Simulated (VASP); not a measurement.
# Pressure and energy convergence of crystalline selenium with the plane-wave cutoff (VASP, PBE, 130 to 420 eV)

A selenium crystal whose cell and atoms are held fixed changes its calculated pressure by 8 GPa when only the plane-wave cutoff is altered. Nothing has been squeezed, so where does the pressure come from, and at which cutoff is it gone?

The problem is set for a selenium photoconductor layer whose stress is to be modelled. The cutoff may contribute at most 50 MPa to the pressure, 1 meV/atom to the energy and 10 meV/Å to any force. The lowest listed cutoff that meets all three limits is wanted. Pressure, energy and forces are calculated with PBE for the trigonal chain crystal, and each error is measured against the 420 eV run of the same crystal, not against experiment.

## Set-up

Single-point runs at fixed cell and atoms; within a crystal every other setting is the same. Program: VASP 6.6.1, plane waves and PAW (data sets made for PBE of release 64), scalar-relativistic without spin-orbit coupling, no spin polarisation. Cutoff 130 to 420 eV; on the k meshes the divisions times the cell-vector length are 24 Å or more. Occupations: Fermi-Dirac smearing of 0.05 eV. Times are rough, from shared x86 server processors. The same in all rows: PAW data sets by their labels: Se.

Notes on method and selection:

- A truncated basis gives a spurious tension (Pulay stress); the pressure converges more slowly than energy differences.
- The lowest cutoffs lie below the values recommended with the data sets and were run to show the error.
- The space group named is that of the cell as run, which can be lower than that of the source structure.
- Runs that did not converge, have known faults or may not be shown are not listed, and runs on Ansatz's PAW sets soft_1 and soft_2 are kept to separate tables.

Columns:

- cutoff (eV): plane-wave cutoff ENCUT.
- pressure error (GPa): pressure minus that of the run with the highest cutoff of the same crystal, compression positive.
- energy error (meV/atom): energy per atom, extrapolated to zero smearing as the program prints it, minus that of the run with the highest cutoff of the same crystal.
- force error (meV/Å): largest difference of the force on an atom against the run with the highest cutoff of the same crystal.
- cost (core-s): processor time of the run, shared machines, rough.

Input lines of one member:

```
PREC = Accurate
ENCUT = 130
EDIFF = 1E-06
NELM = 100
ISMEAR = -1
SIGMA = 0.05
LREAL = .FALSE.
ALGO = Normal
GGA = PE
NBANDS = 15
LORBIT = 11
ISIF = 2
```

Command (options for logging and memory left out): `vasp_std`

## Numbers

| member | cutoff (eV) | pressure error (GPa) | energy error (meV/atom) | force error (meV/Å) | cost (core-s) | remark |
| --- | --- | --- | --- | --- | --- | --- |
| 130 eV | 130 | −8.022 | −49.55 | 58.1 | 6.4 |  |
| 160 eV | 160 | −3.646 | 10.26 | 0.6 | 8.5 |  |
| 190 eV | 190 | −1.474 | 9.04 | 22.1 | 7.5 |  |
| 210 eV | 210 | −0.712 | 5.09 | 20.9 | 10 |  |
| 240 eV | 240 | −0.186 | 1.88 | 10.6 | 14 |  |
| 280 eV | 280 | 0.004 | 0.72 | 3.9 | 17 |  |
| 340 eV | 340 | 0.008 | 0.17 | 1.5 | 21 |  |
| 420 eV | 420 | 0.000 | 0.00 | 0.0 | 33 | entry of the Crystallography Open Database |

pressure error (GPa) against cutoff (eV):

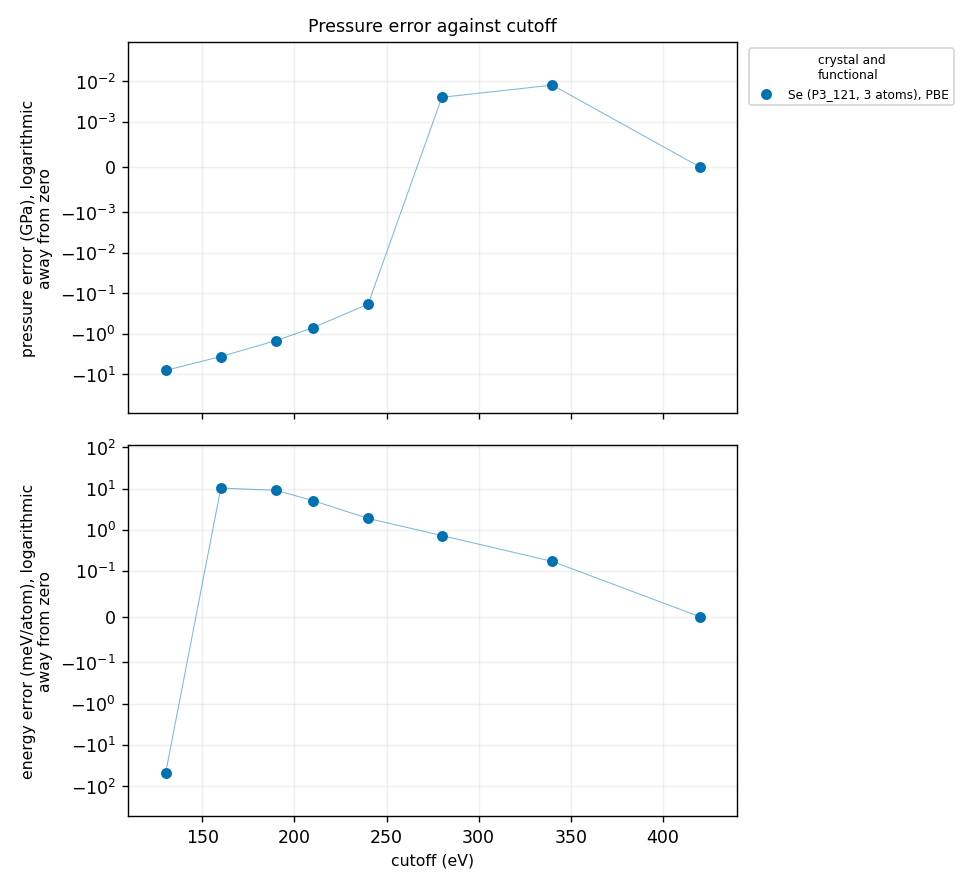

## The trend and its physics

The pressure error shrinks from −8.022 GPa at 130 eV to −0.186 GPa at 240 eV, and is 0.004 GPa at 280 eV. Between 160 and 190 eV the pressure rises by (3.646 − 1.474) / 30 = 0.072 GPa per eV of cutoff; between 210 and 240 eV by (0.712 − 0.186) / 30 = 0.018 GPa per eV. The energy error falls steadily from 160 eV upwards, from 10.26 to 1.88 meV/atom at 240 eV and 0.72 meV/atom at 280 eV.

The negative sign is that of Pulay stress. The stress is evaluated for a fixed set of plane waves. If the cell shrinks, the same waves reach a higher kinetic energy and describe the electrons better, so the energy drops and the crystal seems to pull inwards. With V the volume per atom and E the energy per atom,

Δp ≈ (2/3) (E_cut / V) dE/dE_cut.

The pressure thus follows the slope of the energy with cutoff, multiplied by the cutoff itself, and can be badly wrong while the energy looks nearly settled.

The printed energies look even better settled than this formula allows. With a rough V of 30 Å³ and 1 GPa Å³ = 6.24 meV, the error at 190 eV requires a slope of −1.474 × 30 × 6.24 × 1.5 / 190 = −2.2 meV/atom per eV. The table gives (5.09 − 9.04) / 20 = −0.20 between 190 and 210 eV, several times less even when the fall of the pressure error over that interval is allowed for. The reason is that VASP includes in its atomic reference energy an estimate of the free atom's kinetic-energy error at the chosen cutoff. This removes much of the basis error from the printed energy, while the stress receives no such correction.

## Where the trend breaks

The 130 eV run has an energy error of −49.55 meV/atom, whereas every other run below 420 eV lies above the reference. A smaller basis alone should raise the energy. The likely cause is that the atomic correction overshoots at so low a cutoff, where the PAW projections are also poorly represented. This run shows the size of the error and is unfit for production.

The force error of 0.6 meV/Å at 160 eV is smaller than the 1.5 meV/Å at 340 eV, yet it is no sign of convergence: at 190 eV the error is back at 22.1 meV/Å, and the pressure at 160 eV is still wrong by −3.646 GPa. Contributions to the force error probably happen to cancel there. From 190 eV upwards the force error falls from row to row, and those values can be used as a measure of convergence.

## What the accuracy costs

Going from 130 to 280 eV raises the processor time from 6.4 to 17 core-s, a factor of 17 / 6.4 = 2.7, and cuts the pressure error from −8.022 to 0.004 GPa. That is the worthwhile part of the expense. The run at 420 eV takes 33 core-s and changes the energy by only 0.72 meV/atom. All these times, and the ratios formed from them, are rough: the 190 eV run even came out faster than the 160 eV run.

The size of the basis plausibly accounts for most of the growth: the number of plane waves rises as E_cut^(3/2), which gives (420 / 130)^(3/2) = 5.8 over the whole series, near the observed 33 / 6.4 = 5.2. In larger cells the same choice of cutoff weighs more heavily in absolute time.

## Choosing a member

**Conversion.** Pressure errors become device units through 1 GPa = 1000 MPa. Their effect on a relaxed cell follows from ΔV/V ≈ Δp / B, with a bulk modulus B = 10 GPa assumed for a soft layer.

**Screening.** The runs from 130 to 210 eV fail on pressure, the best of them with −712 MPa. At 240 eV all three limits are missed: −186 MPa, 1.88 meV/atom and 10.6 meV/Å. The pressure error would shrink the relaxed volume by 0.186 / 10 = 0.019, or 1.9 %. At 280 eV the errors are 4 MPa, 0.72 meV/atom and 3.9 meV/Å, and the volume error is 0.004 / 10 = 0.0004, or 0.04 %. This run passes, as does the one at 340 eV.

**Error of the reference.** The 420 eV run has zero error only by definition. The change from 340 to 420 eV serves as an allowance for what it still lacks. Added to the errors at 280 eV, it gives 4 + 8 = 12 MPa, 0.72 + 0.17 = 0.89 meV/atom and 3.9 + 1.5 = 5.4 meV/Å. All three remain within the limits, the energy with the least room.

**Error of the functional.** Even at 420 eV the crystal is under a compressive pressure far above 50 MPa, so PBE would expand this cell. The limits therefore apply to the numerical part of the stress; the absolute stress of a real layer is not predicted to that accuracy.

**Pick.** 280 eV is the lowest listed cutoff that meets the brief. The runner-up is 340 eV, with 0.17 meV/atom and 1.5 meV/Å. It would take first place if the energy limit were tightened to 0.5 meV/atom or the force limit to 3 meV/Å. Relaxing the pressure limit alone would not bring 240 eV back, since its energy and force also fail.

## Summary

For this selenium crystal and PAW data set, the runs at 280 eV and above agree within 0.008 GPa and 0.72 meV/atom. Below that, a small energy error is no assurance of a sound pressure: at 210 eV the energy is within about 5 meV/atom while the pressure is off by −0.712 GPa.

The main omitted effect is dispersion attraction between the chains. As an order-of-magnitude expectation, it would lower the energy by roughly 0.1 eV/atom, more than the whole energy spread of the table, and lower the pressure by roughly 1 GPa or more, over a hundred times the pressure differences among the runs from 280 eV upwards. A higher cutoff does not supply it.

[Logs are printed without paths, hosts, clocks, repeated set-up lines and the standing remarks that a program may print on its own settings, such as how far it seeks lower states.]
